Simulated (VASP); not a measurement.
# Biaxial (001) strain of fcc platinum from −2 % to +2 %: normal strain, stress, strain energy and elastic moduli with PBEsol

Platinum is a close-packed metal held together by a nearly filled 5d band and a broad s band. All nine members are this one crystal, and only the shape of the cell differs. Imposing equal strain along both in-plane axes turns the cubic lattice into a body-centred tetragonal one. Platinum films grown on a substrate of different lattice constant are strained in this way, and their stress and stored energy are usually estimated from linear elasticity. We determine the elastic moduli that follow from the PBEsol series and the strain at which the linear estimate becomes poor. Strains and energies are counted from the relaxed cubic crystal. Stress is positive in tension, and the stress along the normal is relaxed to zero.

## Calculations

The start is an entry of the ASE's table of reference states database. The crystal was relaxed with PBEsol. Equal strain is imposed in the (001) plane; the strain along the normal is adjusted until the normal stress vanishes, and the atoms are relaxed with PBEsol. VASP 6.6.1, plane waves with PAW, cutoff 450 eV, no spin polarisation, no spin-orbit coupling, k mesh 26×26×26, static lattice. The same in all rows: band gap on the k mesh at PBEsol: 0.000 eV.

Notes on method and selection:

- Runs that did not converge, have known faults or may not be shown are not listed, and runs on Ansatz's PAW sets soft_1 and soft_2 are kept to separate tables.

Columns:

- strain (%): strain in the plane (tension positive).
- normal strain (%): strain along the normal.
- stress (GPa): in-plane stress, tension positive.
- strain energy (meV/atom): energy per atom above the relaxed crystal.

Input lines of one member:

```
PREC = Accurate
ENCUT = 450
EDIFF = 1E-07
NELM = 120
ISMEAR = 1
SIGMA = 0.15
LREAL = .FALSE.
ALGO = Normal
GGA = PS
NBANDS = 11
LASPH = .TRUE.
LORBIT = 11
KPAR = 2
IBRION = 1
NSW = 25
```

Command (options for logging and memory left out): `mpirun -np 2 vasp_std`

## Data

| member | strain (%) | normal strain (%) | stress (GPa) | strain energy (meV/atom) |
| --- | --- | --- | --- | --- |
| −2 % | −2.0 | 2.813 | −6.17 | 10.76 |
| −1.5 % | −1.5 | 2.114 | −4.41 | 5.842 |
| −1 % | −1.0 | 1.414 | −2.80 | 2.520 |
| −0.5 % | −0.5 | 0.710 | −1.34 | 0.6112 |
| 0 % | 0.0 | 0.005 | 0.00 | 0.00635 |
| +0.5 % | 0.5 | −0.709 | 1.19 | 0.5652 |
| +1 % | 1.0 | −1.428 | 2.25 | 2.145 |
| +1.5 % | 1.5 | −2.155 | 3.18 | 4.640 |
| +2 % | 2.0 | −2.891 | 3.97 | 7.929 |

normal strain (%) against strain (%):

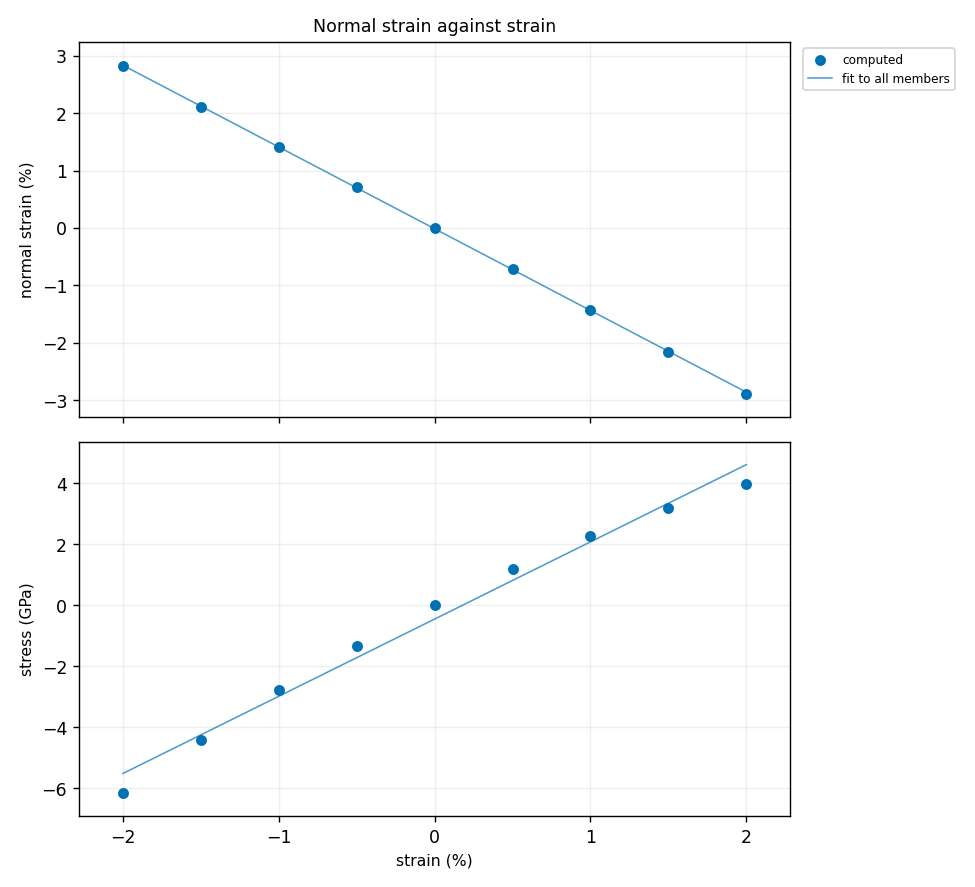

Least-squares fits to the whole series, with x = strain (%); R² and errors in the fitted variable (y, or ln y where the fit is in ln y):

| y | members | fit | R² | rms residual | leave-one-out rms | the same for the mean of the others |
| --- | --- | --- | --- | --- | --- | --- |
| normal strain (%) | 9 | y = −0.01411 − 1.424 x | 1.00 | 0.016 | 0.023 | 2.1 |
| stress (GPa) | 9 | y = −0.4589 + 2.532 x | 0.99 | 0.40 | 0.57 | 3.7 |

## The trend and its physics

The crystal thins when stretched in the plane and thickens when compressed, by about 1.4 times the imposed strain. The stress rises with strain along a curve that flattens in tension: +2 % gives 3.97 GPa, −2 % gives −6.17 GPa. The strain energy is close to a parabola, steeper on the compressed side.

A model with three parameters follows from four assumptions.

1. The primitive cell holds one atom, on which symmetry allows no force, so the cell shape alone carries the response.

2. The normal stress vanishes. To first order $C_{11}\varepsilon_n + 2C_{12}\varepsilon = 0$, where $\varepsilon$ is the in-plane and $\varepsilon_n$ the normal strain. Hence
$$\varepsilon_n = -R\,\varepsilon,\qquad R = 2C_{12}/C_{11}.$$

3. The in-plane stress is $(C_{11}+C_{12})\varepsilon + C_{12}\varepsilon_n$ to first order. Inserting $\varepsilon_n$ gives the biaxial modulus $M$, and one quadratic term $N$ is added for anharmonicity:
$$\sigma = M\varepsilon + N\varepsilon^2,\qquad M = \frac{(C_{11}-C_{12})(C_{11}+2C_{12})}{C_{11}}.$$

4. Only the two in-plane directions do work, and the atomic volume $V_0$ is held constant, so $dU = 2V_0\,\sigma\,d\varepsilon$ and
$$U = V_0 M\varepsilon^2\left(1+\frac{2N}{3M}\varepsilon\right).$$

A ratio $R = 2$ would conserve the volume to first order. Platinum stays below that because a change of volume, though costly, is not forbidden: at +1 % the volume grows by about 2 × 1.0 − 1.428 = 0.57 %. The sign of $N$ is negative, as expected for metallic bonding, in which repulsion stiffens quickly as atoms are pushed together and the restoring force weakens as they are drawn apart.

## Testing the model

We fix the parameters on the members −1 % and +1 %, with strain in per cent.

$R$ = (1.414 + 1.428) / 2.0 = 1.421

$M$ = (2.25 + 2.80) / 2.0 = 2.525 GPa per %, or 2.525 × 100 = 252.5 GPa

$N$ = (2.25 − 2.80) / 2.0 = −0.275 GPa per %²

The moduli follow from $C_{12}/C_{11}$ = 1.421 / 2 = 0.7105. The two factors of $M/C_{11}$ are 1 − 0.7105 = 0.2895 and 1 + 1.421 = 2.421, so

$C_{11}$ = 252.5 / (0.2895 × 2.421) = 360 GPa

$C_{12}$ = 0.7105 × 360 = 256 GPa

The bulk modulus is (360 + 2 × 256) / 3 = 291 GPa, and the tetragonal shear modulus $(C_{11}-C_{12})/2$ is (360 − 256) / 2 = 52 GPa. The shear constant $C_{44}$ does not enter this deformation.

Stress at four other members:

- +2 %: 2.525 × 2.0 − 0.275 × 4.0 = 3.95 GPa; table 3.97.
- +1.5 %: 2.525 × 1.5 − 0.275 × 2.25 = 3.17 GPa; table 3.18.
- −1.5 %: −2.525 × 1.5 − 0.275 × 2.25 = −4.41 GPa; table −4.41.
- −2 %: −2.525 × 2.0 − 0.275 × 4.0 = −6.15 GPa; table −6.17.

For the normal strain at the two ends the model gives 1.421 × 2.0 = 2.842 % in size, negative in tension; the table has −2.891 % at +2 % and 2.813 % at −2 %.

For the energy, $2N/(3M)$ is negative, with the size 2 × 0.275 / (3 × 2.525) = 0.0726 per %. The bracket in $U$ is then 1 − 0.0726 × 2.0 = 0.8548 at +2 %, 1 − 0.0726 = 0.9274 at +1 %, 1 + 0.0726 = 1.0726 at −1 % and 1 + 0.0726 × 2.0 = 1.1452 at −2 %. Scaling from the 1 % member of the same sign cancels the atomic volume:

- +2 %: 2.145 × 4.0 × 0.8548 / 0.9274 = 7.91 meV/atom; table 7.929.
- −2 %: 2.520 × 4.0 × 1.1452 / 1.0726 = 10.76 meV/atom; table 10.76.

## Members off the line

Largest departures from the fit to the whole series:

| member | normal strain (%) | fit | computed − fit | in rms residuals |
| --- | --- | --- | --- | --- |
| +2 % | −2.891 | −2.862 | −0.029 | 1.8 |
| −2 % | 2.813 | 2.834 | −0.021 | 1.3 |
| 0 % | 0.005 | −0.014 | +0.019 | 1.2 |
| +0.5 % | −0.709 | −0.726 | +0.017 | 1.1 |

The constant ratio $R$ is the weakest assumption. The computed normal strain lies below the model at both ends, by 2.891 − 2.842 = 0.049 percentage points at +2 % and by 2.842 − 2.813 = 0.029 at −2 %. The equal sign on both sides marks a missing quadratic term: the crystal is slightly thinner than the straight line predicts in tension and in compression alike.

For the stress, dropping $N$ would be far more serious. The linear term alone gives a stress of size 2.525 × 2.0 = 5.05 GPa at both ends. That is 5.05 − 3.97 = 1.08 GPa too much tension at +2 % and 6.17 − 5.05 = 1.12 GPa too little compression at −2 %. The printed straight-line fit hides this behind an R² of 0.99, but its intercept of −0.4589 GPa contradicts the zero stress of the unstrained member.

That member also shows a normal strain of 0.005 % and an energy of 0.00635 meV/atom. The energy is far too large to be elastic at so small a strain and is a numerical offset from the reference run. It amounts to about 1 % of the energies at ±0.5 % and is negligible at larger strain.

## Summary

Between −2 % and +2 % the stress follows $M\varepsilon + N\varepsilon^2$ to within 0.02 GPa. Linear elasticity with $M$ alone is off by about 6 % of its own value at ±0.5 %, 11 % at ±1 % and a little over a fifth at ±2 %. If an error of a tenth is the limit, the linear estimate becomes poor at about 1 % strain.

Two effects outside the static, perfect crystal exceed the misfit of the model. Thermal softening lowers the moduli by roughly a few per cent at room temperature. Dislocation glide matters far more: soft bulk platinum yields well below 1 GPa, so stresses of several GPa can be expected only in very thin films or similarly small crystals.

[Logs are printed without paths, hosts, clocks, repeated set-up lines and the standing remarks that a program may print on its own settings, such as how far it seeks lower states.]
